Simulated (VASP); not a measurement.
# Conduction valleys of diamond-structure Si against volume: Γ, Δ and L levels from HSE06 with spin-orbit coupling

Every member of this series is elemental silicon in the diamond structure, with four equal covalent bonds per atom; only the bond length changes. We ask how fast the conduction levels at Γ, at L and in the Δ valley along Γ–X move with volume, and whether their order changes. This matters for devices because the lowest valley holds the electrons at low field, while the distance to the higher ones helps to set when hot electrons can reach them. The levels are HSE06 energies with spin-orbit coupling on evenly scaled LDA cells, counted from the valence-band top at Γ. Even scaling represents the volume part of a strain and leaves the equivalent Δ valleys degenerate.

## Systems and settings

The start is a typed prototype cell. The crystal was relaxed with LDA. It is scaled evenly about that cell, atoms relaxed with LDA. VASP 6.6.1, plane waves with PAW, cutoff 450 eV, no spin polarisation. Band edges are single points at HSE06 with spin-orbit coupling on these cells, k mesh 5×5×5, read on short lines of k points at the zone centre and through the valleys; energies are counted from the valence-band top at the zone centre.  All levels use the PAW data sets made with LDA.

Notes on method and selection:

- A valley's energy from the valence-band top holds the shift of that top as well as the shift of the valley.
- Runs that did not converge, have known faults or may not be shown are not listed, and runs on Ansatz's PAW sets soft_1 and soft_2 are kept to separate tables.

Columns:

- 100 ln(V/V0): 100 ln(V/V0), V0 the volume of the reference cell.
- Γ level (eV): lowest conduction level at Γ.
- Δ valley (eV): minimum of the conduction band along Γ–X.
- L valley (eV): conduction level at L.

## The series

| member | 100 ln(V/V0) | Γ level (eV) | Δ valley (eV) | L valley (eV) |
| --- | --- | --- | --- | --- |
| V/V0 = 0.94 | −6.19 | 3.349 | 1.006 | 2.555 |
| V/V0 = 0.96 | −4.08 | 3.341 | 1.050 | 2.473 |
| V/V0 = 0.98 | −2.02 | 3.331 | 1.090 | 2.392 |
| V/V0 = 1 | 0.00 | 3.321 | 1.129 | 2.313 |
| V/V0 = 1.02 | 1.98 | ? | ? | ? |
| V/V0 = 1.04 | 3.92 | 3.300 | 1.198 | 2.159 |
| V/V0 = 1.06 | 5.83 | 3.289 | 1.229 | 2.084 |

Cells marked ? are withheld until the estimate has been made.

Least-squares fits to the members shown, with x = 100 ln(V/V0); R² and errors in the fitted variable (y, or ln y where the fit is in ln y):

| y | members | fit | R² | rms residual | leave-one-out rms | the same for the mean of the others |
| --- | --- | --- | --- | --- | --- | --- |
| Γ level (eV) | 6 | y = 3.3197 − 0.0050491 x | 1.00 | 0.0012 | 0.0021 | 0.026 |
| Δ valley (eV) | 6 | y = 1.1248 + 0.018500 x | 1.00 | 0.0031 | 0.0053 | 0.094 |

## The trend and its physics

The order is Δ, then L, then Γ in all six complete rows, but the spacings change considerably. From V/V0 = 0.94 to 1.06 the volume coordinate grows by 5.83 + 6.19 = 12.02, which lengthens the bonds by about 4 %. The mean slopes, in eV per unit of 100 ln V (close to 1 % of volume), are:

- Δ: (1.229 − 1.006) / 12.02 = +0.0186
- L: (2.084 − 2.555) / 12.02 = −0.0392
- Γ: (3.289 − 3.349) / 12.02 = −0.0050

The L valley therefore moves about twice as fast as the Δ valley, and in the opposite direction. Their separation falls from 2.555 − 1.006 = 1.549 eV to 2.084 − 1.229 = 0.855 eV. This difference does not contain the shift of the valence-band top, so the approach of the two valleys is a real relative motion. L also draws away from Γ, by 0.794 eV at the smallest volume and 1.205 eV at the largest.

Bonding theory offers a reason for the main contrast, though the energies alone do not prove it. The L state has a large antibonding s part, and longer bonds weaken the overlap that pushes it up, so it falls on expansion. The lowest Γ level in silicon is p-like and antibonding, while the valence top is its p-like bonding partner. Their splitting also shrinks as the bonds lengthen, but much more slowly. The Δ state has less nearest-neighbour antibonding character. Mixing with higher d-like states, which grows on compression and pushes the valley down, may contribute to its opposite slope.

For silicon under pressure the consequence is a smaller indirect gap, since the Δ valley is the band edge and comes down as the volume shrinks.

## Prediction

Plain estimates from the members shown:

- V/V0 = 1.02, fit at x = 1.98: 3.310 eV
- V/V0 = 1.02, straight-line interpolation between V/V0 = 1 and V/V0 = 1.04: w = (1.98 − 0.00) / (3.92 − 0.00) = 0.505, so 3.321 + 0.505 × (3.300 − 3.321) = 3.310 eV

We use interpolation between V/V0 = 1 and 1.04, because the Γ level bends slightly and the straight fit to all members already lies 0.0013 eV too low at V/V0 = 1. A change of orbital character is not expected in this interval. The competing s-like antibonding level at Γ falls quickly with volume; had it become the lowest level by V/V0 = 1.04, the slope there should have steepened sharply, and it does not.

The straight interpolation gives 3.321 − 0.505 × 0.021 = 3.3104 eV. The bend follows from the mean slopes on the two sides of V0:

- compressed side: −0.028 / 6.19 = −0.00452
- expanded side: −0.032 / 5.83 = −0.00549

The midpoints of these intervals are (5.83 + 6.19) / 2 = 6.01 apart, so the curvature is (−0.00549 + 0.00452) / 6.01 = −0.00016 eV per unit squared. A curve of this sign lies above its chord by half the curvature times the distances to the two neighbours, 1.98 and 3.92 − 1.98 = 1.94, here 0.5 × 0.00016 × 1.98 × 1.94 = 0.0003 eV. The result is 3.3104 + 0.0003 = 3.3107 eV.

The same route for V/V0 = 0.98, from its neighbours at 0.96 and 1, gives 3.341 + 0.505 × (3.321 − 3.341) + 0.0003 = 3.3312 eV against the tabulated 3.331 eV. Over the four interior members shown, the largest miss is about 0.0008 eV, at V/V0 = 0.96. With the rounding of the table included, we take 0.001 eV as one standard deviation.

**Committed estimate, V/V0 = 1.02: Γ level = 3.311 ± 0.001 eV.**

## Check

| member | 100 ln(V/V0) | Γ level (eV) | Δ valley (eV) | L valley (eV) |
| --- | --- | --- | --- | --- |
| V/V0 = 1.02 | 1.98 | 3.311 | 1.164 | 2.235 |

| member | estimate | Γ level (eV) | computed | estimate − computed | miss in error bars |
| --- | --- | --- | --- | --- | --- |
| V/V0 = 1.02 | committed | 3.311 | 3.311 | 0.000 | 0.0 |
| V/V0 = 1.02 | fit | 3.310 | 3.311 | −0.001 |  |
| V/V0 = 1.02 | interpolation | 3.310 | 3.311 | −0.001 |  |

Γ level (eV) against 100 ln(V/V0):

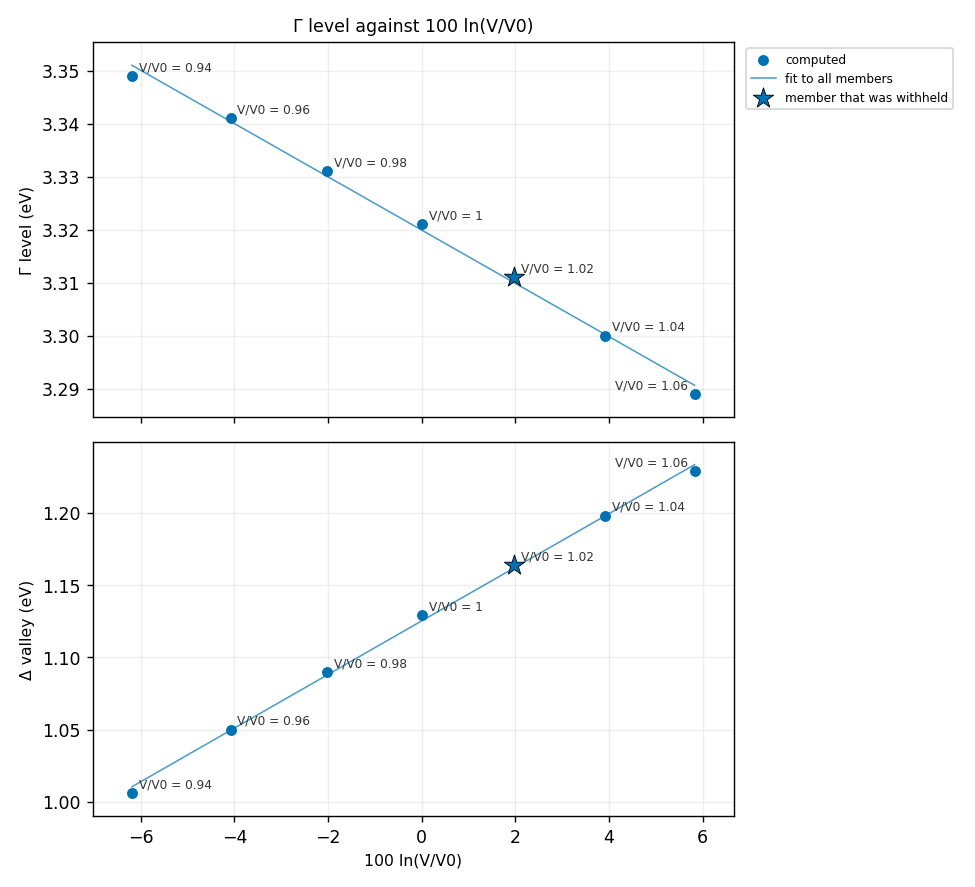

The estimate of 3.311 eV agrees with the computed level to the last printed digit and so lies inside its error bar of 0.001 eV. The straight fit and the straight interpolation both come out 0.001 eV lower. That margin is no more than the rounding of the table, so the small correction for the bend, 0.0003 eV, is neither confirmed nor refuted.

What held is the assumption of a smooth course between V/V0 = 1 and 1.04. The level falls by 0.010 eV up to the new member and by 0.011 eV after it, with no sign of the s-like antibonding level taking over as the lowest state at Γ. This fits a p-like level that moves slowly against the valence top, though a smooth course alone does not identify the orbitals.

The other two valleys also fall into line at V/V0 = 1.02. The order Δ, L, Γ is therefore the same in all seven rows.

## Members off the line

Least-squares fits to the whole series, with x = 100 ln(V/V0); R² and errors in the fitted variable (y, or ln y where the fit is in ln y):

| y | members | fit | R² | rms residual | leave-one-out rms | the same for the mean of the others |
| --- | --- | --- | --- | --- | --- | --- |
| Γ level (eV) | 7 | y = 3.3199 − 0.0050252 x | 1.00 | 0.0012 | 0.0020 | 0.024 |
| Δ valley (eV) | 7 | y = 1.1252 + 0.018547 x | 1.00 | 0.0030 | 0.0049 | 0.087 |

Largest departures from the fit to the whole series:

| member | Γ level (eV) | fit | computed − fit | in rms residuals |
| --- | --- | --- | --- | --- |
| V/V0 = 0.94 | 3.349 | 3.351 | −0.002 | 1.7 |
| V/V0 = 1.06 | 3.289 | 3.291 | −0.002 | 1.3 |
| V/V0 = 1 | 3.321 | 3.320 | +0.001 | 0.9 |
| V/V0 = 1.02 | 3.311 | 3.310 | +0.001 | 0.9 |

None of the seven members stands out. The two end members, V/V0 = 0.94 and 1.06, each lie 0.002 eV below the straight fit, while those at 1 and 1.02 lie 0.001 eV above it, which is the pattern a straight line leaves on a gently bent curve. The Γ level falls faster on the expanded side, by 0.032 eV from V/V0 = 1 to 1.06 against 0.028 eV from 0.94 to 1, although the expanded side covers the shorter interval in ln V.

## Rules of thumb and their limits

Between V/V0 = 0.94 and 1.06 the Δ valley stays lowest and rises on expansion, while L and Γ fall. For a new volume inside this range, the straight fits are good to about 0.002 eV for Γ and 0.005 eV for Δ, judged by leaving one member out.

For device models, the fitted Δ slope gives a volume deformation potential of the indirect gap of 100 × 0.018547 = 1.85 eV. A compression of 1 % in volume thus narrows the gap by about 0.019 eV. This is a relative value and cannot serve as the shift of the conduction edge alone.

Lattice vibrations are left out. They lower the indirect gap of silicon, so the levels here are those of a static lattice. A lowering common to all volumes would leave the slope of the Δ valley unchanged; only its variation with volume would alter the deformation potential.
